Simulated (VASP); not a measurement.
# Elastic response of wurtzite CdSe to biaxial (0001) strain between −2 % and +2 % in LDA

Stretching CdSe by 0.5 % in the (0001) plane and compressing it by the same amount produce almost equal and opposite stresses, 0.447 and −0.436 GPa. The strain energies nevertheless differ by almost a factor of two, 0.2624 against 0.5039 meV/atom. In linear elasticity they should be equal. The question matters for films held to a substrate, whose stress and stored energy are usually estimated from linear moduli. Normal strain, in-plane stress and energy per atom are calculated here in LDA for a static lattice with a stress-free normal. Strains are counted from the relaxed cell, and tension is positive.

## How the numbers were made

The start is a typed prototype cell. The crystal was relaxed with LDA. Equal strain is imposed in the (0001) plane; the strain along the normal is adjusted until the normal stress vanishes, and the atoms are relaxed with LDA. VASP 6.6.1, plane waves with PAW, cutoff 450 eV, no spin polarisation, no spin-orbit coupling, k mesh 8×8×5, static lattice.

Notes on method and selection:

- Runs that did not converge, have known faults or may not be shown are not listed, and runs on Ansatz's PAW sets soft_1 and soft_2 are kept to separate tables.

Columns:

- strain (%): strain in the plane (tension positive).
- gap (eV): band gap on the k mesh at LDA.
- normal strain (%): strain along the normal.
- stress (GPa): in-plane stress, tension positive.
- strain energy (meV/atom): energy per atom above the relaxed crystal.

Input lines of one member:

```
PREC = Accurate
ENCUT = 450
EDIFF = 1E-07
NELM = 120
ISMEAR = 0
SIGMA = 0.02
LREAL = .FALSE.
ALGO = Normal
GGA = CA
NBANDS = 24
LASPH = .TRUE.
LORBIT = 11
KPAR = 4
IBRION = 1
NSW = 25
```

Command (options for logging and memory left out): `mpirun -np 4 vasp_std`

## Computed values

| member | strain (%) | gap (eV) | normal strain (%) | stress (GPa) | strain energy (meV/atom) |
| --- | --- | --- | --- | --- | --- |
| −2 % | −2.0 | 0.427 | 1.907 | −1.842 | 6.733 |
| −1.5 % | −1.5 | 0.446 | 1.434 | −1.376 | 3.874 |
| −1 % | −1.0 | 0.460 | 0.972 | −0.898 | 1.776 |
| −0.5 % | −0.5 | 0.472 | 0.497 | −0.436 | 0.5039 |
| 0 % | 0.0 | 0.482 | 0.000 | −0.005 | 0.01498 |
| +0.5 % | 0.5 | 0.488 | −0.452 | 0.447 | 0.2624 |
| +1 % | 1.0 | 0.478 | −0.923 | 0.893 | 1.273 |
| +1.5 % | 1.5 | 0.447 | −1.390 | 1.322 | 3.027 |
| +2 % | 2.0 | 0.417 | −1.853 | 1.750 | 5.515 |

normal strain (%) against strain (%):

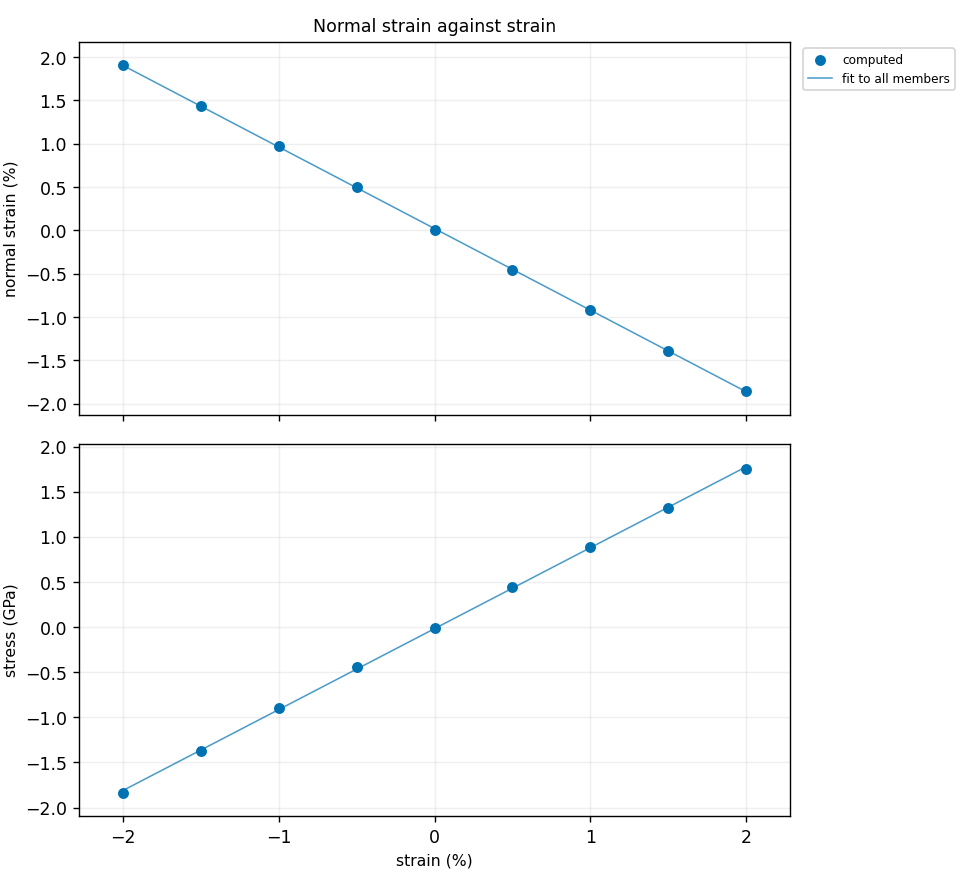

Least-squares fits to the whole series, with x = strain (%); R² and errors in the fitted variable (y, or ln y where the fit is in ln y):

| y | members | fit | R² | rms residual | leave-one-out rms | the same for the mean of the others |
| --- | --- | --- | --- | --- | --- | --- |
| normal strain (%) | 9 | y = 0.02133 − 0.9417 x | 1.00 | 0.0086 | 0.010 | 1.4 |
| stress (GPa) | 9 | y = −0.01611 + 0.8976 x | 1.00 | 0.020 | 0.028 | 1.3 |

## Mechanism

As the in-plane strain goes from −2 % to +2 %, the normal strain falls from 1.907 % to −1.853 % and the stress rises from −1.842 to 1.750 GPa, both nearly in straight lines. The energy is close to a parabola, but a lopsided one.

The simplest model rests on three assumptions: stress is linear in strain, the normal stress is zero, and the reference cell is both free of stress and lowest in energy. Let x be the strain in the plane, z the strain along the normal and Cij the elastic constants with the atoms relaxed.

In a hexagonal crystal the normal stress is 2 C13 x + C33 z. Setting it to zero gives z = −r x, with r = 2 C13/C33.

The in-plane stress is σ = (C11 + C12) x + C13 z. Inserting z gives σ = M x, with the biaxial modulus M = C11 + C12 − 2 C13²/C33.

Work is done along two in-plane directions and none along the normal, so dU = 2 V σ dx, where V is the volume per atom. Integration gives U = k x², with k = V M.

The fits to the whole series give r = 0.94 and M = 0.8976 GPa per %, or about 90 GPa. The first means C13/C33 = 0.94 / 2 = 0.47. These are two combinations of four constants, so C11, C12, C13 and C33 do not follow one by one.

A positive r is usual in solids; its considerable size here fits a tetrahedral network, in which bending bond angles costs less than stretching bonds. Under tension the slanted bonds turn towards the plane and the crystal becomes thinner. The Cd–Se spacing along c grows as a fraction of c while c itself shrinks, so the length of the axial bond changes by a smaller fraction than c does, as expected of a stiff bond.

## The model against the table

The three parameters are fixed on the −1 % and +1 % members, averaging magnitudes so that terms of the wrong symmetry cancel:

r = (0.972 + 0.923) / 2 = 0.9475

M = (0.898 + 0.893) / 2 = 0.8955 GPa per %

k = (1.776 + 1.273) / 2 = 1.5245 meV/atom per %²

For +2 %:

- Normal strain: −0.9475 × 2.0 = −1.895 %; table −1.853 %.
- Stress: 0.8955 × 2.0 = 1.791 GPa; table 1.750 GPa.
- Energy: 1.5245 × 2.0² = 6.098 meV/atom; table 5.515 meV/atom.

For −2 %:

- Normal strain: 0.9475 × 2.0 = 1.895 %; table 1.907 %.
- Stress: −0.8955 × 2.0 = −1.791 GPa; table −1.842 GPa.
- Energy: again 6.098 meV/atom; table 6.733 meV/atom.

For +0.5 %:

- Normal strain: −0.9475 × 0.5 = −0.474 %; table −0.452 %.
- Stress: 0.8955 × 0.5 = 0.448 GPa; table 0.447 GPa.
- Energy: 1.5245 × 0.5² = 0.381 meV/atom; table 0.2624 meV/atom.

For −0.5 %:

- Normal strain: 0.9475 × 0.5 = 0.474 %; table 0.497 %.
- Stress: −0.8955 × 0.5 = −0.448 GPa; table −0.436 GPa.
- Energy: again 0.381 meV/atom; table 0.5039 meV/atom.

Doubling the strain beyond the fixing points costs the stress less than 3 % in accuracy, while the energy misses by about 10 %. At half the strain the energy is relatively worse, 45 % too high in tension and 24 % too low in compression. An anharmonic term alone would do the opposite and fade towards small strain.

## Departures from the trend

Largest departures from the fit to the whole series:

| member | normal strain (%) | fit | computed − fit | in rms residuals |
| --- | --- | --- | --- | --- |
| 0 % | 0.000 | 0.021 | −0.021 | 2.5 |
| +2 % | −1.853 | −1.862 | +0.009 | 1.1 |
| −1 % | 0.972 | 0.963 | +0.009 | 1.0 |
| −0.5 % | 0.497 | 0.492 | +0.005 | 0.6 |

The largest failure is in the energy, which the model puts too high in tension and too low in compression. The assumption at fault is that zero stress and lowest energy coincide. The ±0.5 % rows give a linear term of (0.2624 − 0.5039) / 1.0 = −0.2415 meV/atom per %. The minimum therefore lies near 0.2415 / (2 × 1.5245) = 0.079 % tension, equivalent to a stress of −0.8955 × 0.079 = −0.071 GPa at zero strain, where the table has −0.005 GPa. The likely cause is the finite plane-wave basis. At fixed cutoff a larger cell holds more plane waves, which lowers its energy, and the calculated stress omits this gain. Rebuilding the basis for the relaxed cell does not supply the missing term.

With the linear term added, the model gives 6.098 − 0.2415 × 2.0 = 5.615 meV/atom at +2 % and 6.098 + 0.2415 × 2.0 = 6.581 meV/atom at −2 %. The remaining misses, 5.615 − 5.515 = 0.100 and 6.581 − 6.733 = −0.152 meV/atom, have the sign of true anharmonicity: bonds soften when stretched and stiffen when compressed. The 0.01498 meV/atom at zero strain is a small offset that the model ignores.

The normal strain at 0 % lies 0.021 percentage points below its fit. Averages over each ± pair show a similar offset at every strain, which points to a slightly short reference cell along c, within reach of a small leftover normal stress.

## Conclusions and limits

From −2 % to +2 %, a constant biaxial modulus of about 90 GPa reproduces the stress of every strained member to about 3 %, and a constant r gives the normal strain within 0.05 percentage points. The energy reaches 3 % only with the linear term included, so a modulus drawn from energies should use both signs of strain. The unequal energies at ±0.5 % are thus most likely a product of the finite basis, not a property to be expected of a real film.

Two omitted effects can exceed these misses. The choice of functional is one: gradient-corrected functionals commonly give lower semiconductor moduli than LDA. The other is plastic relaxation. In a film thick enough to form misfit dislocations, stress and stored energy fall below the values for a coherent crystal.

[Logs are printed without paths, hosts, clocks, repeated set-up lines and the standing remarks that a program may print on its own settings, such as how far it seeks lower states.]
